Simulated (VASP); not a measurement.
# Drift of free energy, extrapolated energy and pressure with smearing width in bcc Ta: Gaussian and second-order Methfessel-Paxton smearing at PBE

We calculated the free energy, the energy extrapolated to zero smearing and the pressure of bcc Ta at PBE, with the cell, the atoms and the 9×9×9 k mesh held fixed. Only the smearing scheme and its width σ change. All errors are differences from the run with Gaussian smearing of 0.01 eV, so they measure drift within one level of theory and not distance from experiment. The question is how far each quantity drifts as σ grows in the two schemes. It matters for models of Ta films and barrier layers, where energies of competing structures and residual stresses are compared: a smearing error cancels between two structures only as far as their densities of states near the Fermi level agree.

## Set-up

One crystal without a Kohn-Sham gap, Ta (bcc) (known phase), at PBE; single-point runs at fixed cell and atoms on one k mesh (9×9×9), only the smearing changed. Program: VASP 6.6.1, plane waves and PAW (data sets made for PBE of release 64), scalar-relativistic without spin-orbit coupling, no spin polarisation. Cutoff 400 eV; on the k meshes the divisions times the cell-vector length are 25 Å or more.

Notes on method and selection:

- For Gaussian or Fermi-Dirac smearing the free energy falls as σ² times the density of states at the Fermi level; Methfessel-Paxton schemes cancel the leading order.
- At the smallest widths the mesh is too coarse for the step in the occupations, so the reference carries its own sampling error.
- Runs that did not converge, have known faults or may not be shown are not listed, and runs on Ansatz's PAW sets soft_1 and soft_2 are kept to separate tables.

Columns:

- width (eV): smearing width SIGMA.
- iterations: electronic iterations.
- free-energy error (meV/atom): free energy per atom minus that of the run with Gaussian smearing of 0.01 eV.
- energy error (meV/atom): energy per atom, extrapolated to zero smearing as the program prints it, minus that of the run with Gaussian smearing of 0.01 eV.
- pressure error (GPa): pressure minus that of the run with Gaussian smearing of 0.01 eV, compression positive.
- smearing term (meV/atom): free energy minus the extrapolated energy, per atom.

## Numbers

| member | scheme | width (eV) | iterations | free-energy error (meV/atom) | energy error (meV/atom) | pressure error (GPa) | smearing term (meV/atom) |
| --- | --- | --- | --- | --- | --- | --- | --- |
| σ = 0.01 eV | Gaussian | 0.01 | 12 | 0.00 | 0.00 | 0.000 | −0.19 |
| σ = 0.05 eV | Gaussian | 0.05 | 12 | −2.47 | −0.46 | 0.062 | −2.20 |
| σ = 0.1 eV | Gaussian | 0.10 | 11 | ? | ? | ? | ? |
| σ = 0.2 eV | Gaussian | 0.20 | 11 | −24.20 | −6.04 | 0.442 | −18.35 |
| σ = 0.5 eV | Gaussian | 0.50 | 11 | −99.52 | −19.80 | 0.986 | −79.91 |
| σ = 0.01 eV | Methfessel-Paxton, second order | 0.01 | 12 | 0.23 | 0.08 | 0.004 | −0.04 |
| σ = 0.05 eV | Methfessel-Paxton, second order | 0.05 | 12 | −0.09 | −0.17 | 0.151 | −0.11 |
| σ = 0.1 eV | Methfessel-Paxton, second order | 0.10 | 12 | −0.50 | −0.36 | −0.034 | −0.33 |
| σ = 0.2 eV | Methfessel-Paxton, second order | 0.20 | 11 | −3.37 | −1.76 | 0.083 | −1.79 |
| σ = 0.5 eV | Methfessel-Paxton, second order | 0.50 | 11 | −14.11 | −10.41 | 0.461 | −3.89 |

Cells marked ? are withheld until the estimate has been made.

free-energy error (meV/atom) against width (eV), members shown:

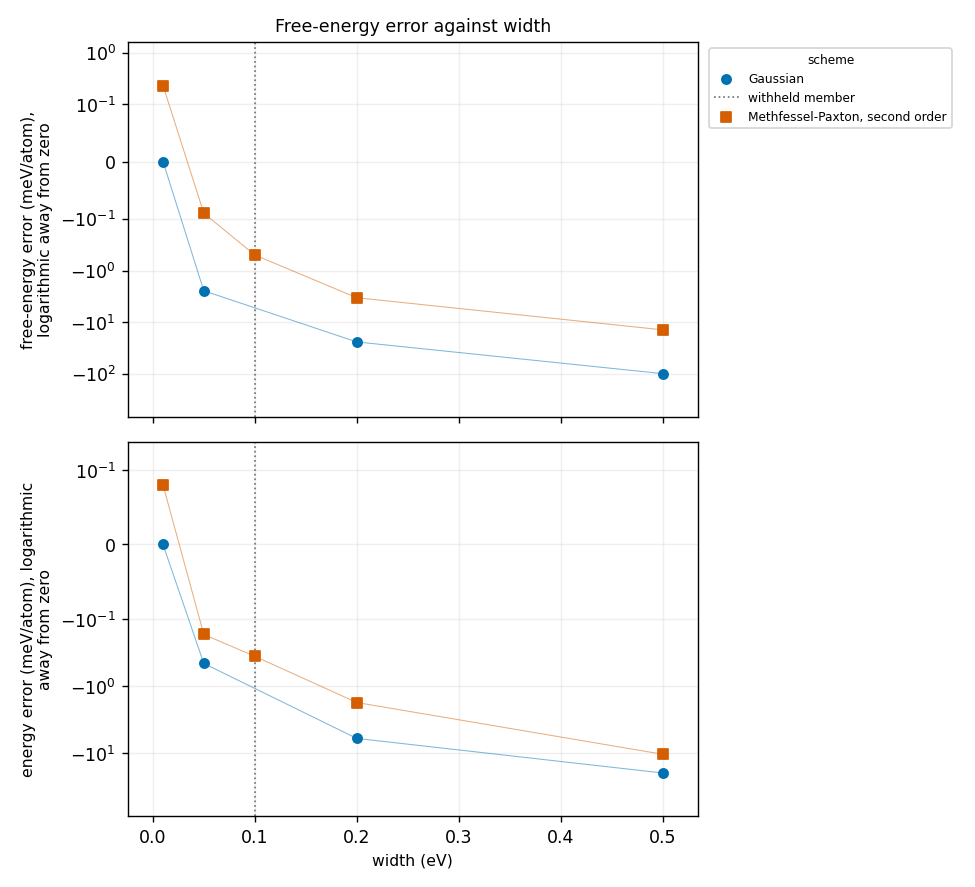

## What drives the series

With Gaussian smearing the free energy falls steadily over the widths shown, to −24.20 meV/atom at 0.2 eV and −99.52 meV/atom at 0.5 eV. Partial occupations bring in an entropy-like term that lowers the free energy by an amount proportional to σ² times the density of states at the Fermi level, if that density is constant over the smeared window. Here the growth is slower than quadratic. From 0.2 to 0.5 eV, σ² rises by a factor of 0.25 / 0.04 = 6.25, but the error rises by 99.52 / 24.20 = 4.11. A density of states that is lower away from the Fermi level would have this effect; at the small widths the coarse mesh may contribute as well.

Methfessel-Paxton smearing cancels the leading term. At 0.2 eV its free-energy error is −3.37 meV/atom, smaller than the Gaussian one by a factor of 24.20 / 3.37 = 7.2. What remains comes from the variation of the density of states across the window, and it reaches −14.11 meV/atom at 0.5 eV.

Extrapolation removes most of the Gaussian error but not all of it, because it too assumes a purely quadratic law. The extrapolated energy is still off by −6.04 meV/atom at 0.2 eV, against −1.76 meV/atom with Methfessel-Paxton. At 0.1 eV the Methfessel-Paxton errors are −0.50 meV/atom in the free energy and −0.36 meV/atom in the extrapolated energy.

The pressure rises with Gaussian width, by 0.442 GPa at 0.2 eV and 0.986 GPa at 0.5 eV. The sign is the expected one: expansion narrows the d bands and usually raises the density of states, so the smearing term favours a larger volume and pushes outwards. The Methfessel-Paxton pressures show no steady course at small widths, going from 0.151 GPa at 0.05 eV to −0.034 GPa at 0.1 eV, though they reach 0.461 GPa at 0.5 eV. We read the change of about 0.2 GPa between 0.05 and 0.1 eV as k-point sampling error. The reference pressure may itself be somewhat low, since further converged runs on this crystal, not listed here, all lie above it.

## A prediction

Plain estimates from the members shown:

- σ = 0.1 eV (Gaussian), straight-line interpolation between σ = 0.05 eV and σ = 0.2 eV: w = (0.10 − 0.05) / (0.20 − 0.05) = 0.333, so −2.47 + 0.333 × (−24.20 − (−2.47)) = −9.71 meV/atom
- σ = 0.1 eV (Gaussian), from its own Methfessel-Paxton, second order value plus the mean shift Gaussian − Methfessel-Paxton, second order over the other 4 members (−27.21, standard deviation 35): −0.50 − 27.21 = −27.71 meV/atom

The withheld value is the free-energy error for Gaussian smearing of 0.1 eV. The straight line gives −9.71 meV/atom, which is too negative because the free energy falls ever more steeply with σ. The mean shift between schemes is dominated by the widest smearing and is of no use at 0.1 eV.

A better route uses the smearing term. The slope of the free energy with σ is minus the entropy, and for Gaussian smearing the extrapolated energy lies midway between the free energy and the energy without the entropy term. The slope is therefore 2 × smearing term / σ:

- at 0.05 eV: 2 × (−2.20) / 0.05 = −88.0 meV/atom per eV
- at 0.2 eV: 2 × (−18.35) / 0.20 = −183.5 meV/atom per eV

The cubic through both values with both slopes is taken one third of the way along the interval. There the values have the weights 20 / 27 = 0.741 and 7 / 27 = 0.259, and the slopes, times the length of the interval, have 4 / 27 = 0.148 and, with a minus sign, 2 / 27 = 0.0741. This gives

0.741 × (−2.47) + 0.259 × (−24.20) + 0.15 × [0.148 × (−88.0) − 0.0741 × (−183.5)] = −8.0 meV/atom.

We tried the same construction on two shown members. From 0.01 and 0.2 eV it gives about −2.5 at 0.05 eV, against −2.47 in the table. From 0.05 and 0.5 eV, where the slope at the upper end is 2 × (−79.91) / 0.50 = −319.6, it gives 0.741 × (−2.47) + 0.259 × (−99.52) + 0.45 × [0.148 × (−88.0) − 0.0741 × (−319.6)] = −22.8 at 0.2 eV, against −24.20. The misses are about 1% and 6%, or 4% as a root mean square, and 0.04 × 8.0 = 0.3 meV/atom.

**Committed estimate, σ = 0.1 eV (Gaussian): free-energy error = −8.0 ± 0.3 meV/atom.**

## The answer

| member | scheme | width (eV) | iterations | free-energy error (meV/atom) | energy error (meV/atom) | pressure error (GPa) | smearing term (meV/atom) |
| --- | --- | --- | --- | --- | --- | --- | --- |
| σ = 0.1 eV | Gaussian | 0.10 | 11 | −8.15 | −1.61 | 0.146 | −6.74 |

| member | estimate | free-energy error (meV/atom) | computed | estimate − computed | miss in error bars |
| --- | --- | --- | --- | --- | --- |
| σ = 0.1 eV (Gaussian) | committed | −8.00 | −8.15 | +0.15 | 0.5 |
| σ = 0.1 eV (Gaussian) | interpolation | −9.71 | −8.15 | −1.56 |  |
| σ = 0.1 eV (Gaussian) | shift from Methfessel-Paxton, second order | −27.71 | −8.15 | −19.56 |  |

free-energy error (meV/atom) against width (eV):

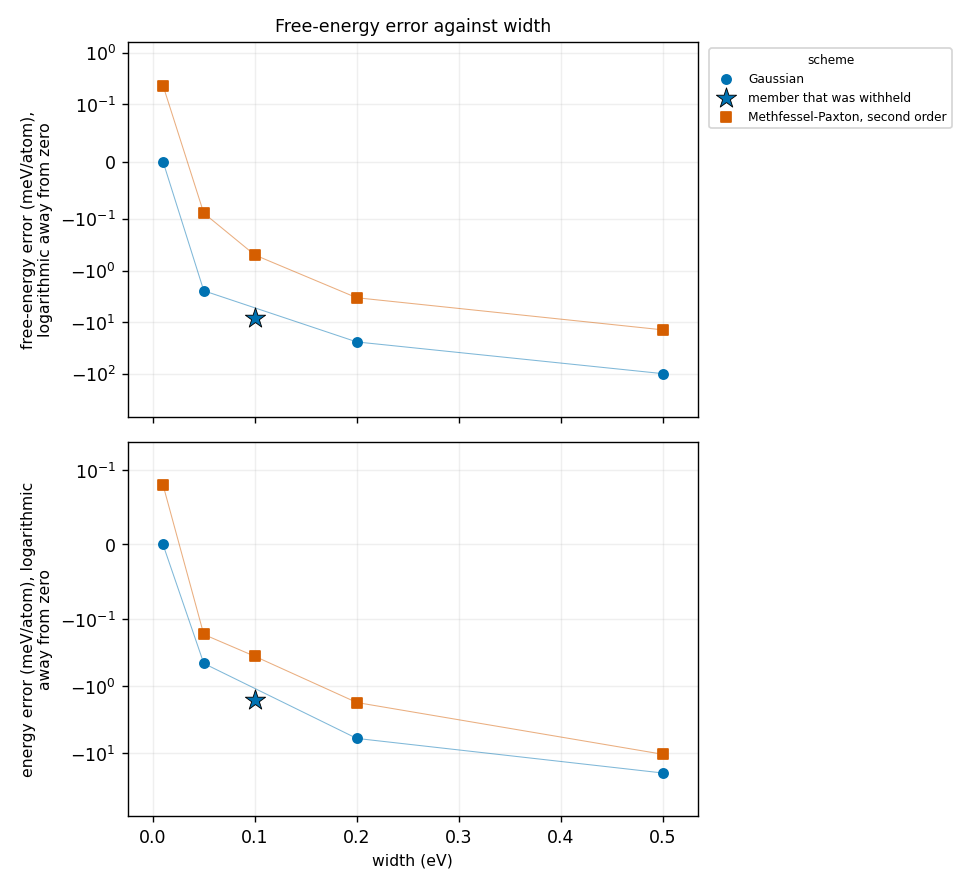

The estimate of −8.0 ± 0.3 meV/atom missed the computed −8.15 by 0.15, half an error bar. Interpolation missed by 1.56 and the shift between schemes by 19.56 meV/atom. Using the smearing term as a slope held: the cubic has a slope of about −130 meV/atom per eV at 0.1 eV, and the new row gives 2 × (−6.74) / 0.10 = −134.8. This confirms the link between free energy and entropy on a fixed mesh, but not our first reason for the slower than quadratic growth.

For Gaussian smearing and a constant density of states D, the smearing term is −Dσ²/4, so the density of states seen by the run is −4 × smearing term / σ², with the term in eV. From 0.01 to 0.5 eV this gives 7.6, 3.5, 2.7, 1.8 and 1.3 states per eV and atom. Ten d states spread over roughly 10 eV average about one. The steady rise towards small widths therefore points to the coarse mesh more than to a real peak at the Fermi level, which we had put first.

## Where the trend breaks

The reference run, Gaussian at 0.01 eV, stands out most. Scaling the smearing term at 0.05 eV by σ² gives −2.20 / 25 = −0.09 meV/atom, but the table has −0.19. A single set of 48 equivalent mesh points with a level at the Fermi energy would be enough. The mesh has 9 × 9 × 9 = 729 points, so the set can hold 2 × 48 / 729 = 0.13 electrons per atom. A Gaussian of width σ has the height 1/(√π σ), with √π about 1.8, so the set contributes 0.13 / (1.8 × 0.01) = 7.2 states per eV and atom, close to the 7.6 found. The energy of this run can be off by much more than its small smearing term, because whole sets of points are either filled or empty.

The Methfessel-Paxton pressures at 0.05 and 0.1 eV are the other irregular pair, at 0.151 and −0.034 GPa. Levels near the Fermi energy change their occupation abruptly at such widths, and the scheme's occupations are not monotonic in energy, so sampling error is the likeliest cause here too.

## Closing remarks

On this mesh, a Gaussian free energy between two calculated widths can be estimated to a few per cent from the free energies and smearing terms at both ends. Widths must not be mixed: going from 0.1 to 0.2 eV with Gaussian smearing shifts the free energy by −24.20 − (−8.15) = −16.05 meV/atom, the extrapolated energy by −6.04 − (−1.61) = −4.43 meV/atom and the pressure by 0.442 − 0.146 = 0.296 GPa.

The table does not show which width is nearest to the converged result, since part of the drift at large σ may be the removal of the reference's sampling error. A denser mesh would settle this.

Two errors that this series does not probe are comparable with the largest drifts or exceed them. Spin-orbit coupling lowers the total energy of a 5d metal by roughly 0.1 eV per atom or more, though much of this cancels between structures. PBE tends to make 5d metals slightly too large; 0.5% in the lattice constant at a bulk modulus near 200 GPa means about 3 × 0.005 × 200 = 3 GPa too much pressure at the measured cell.
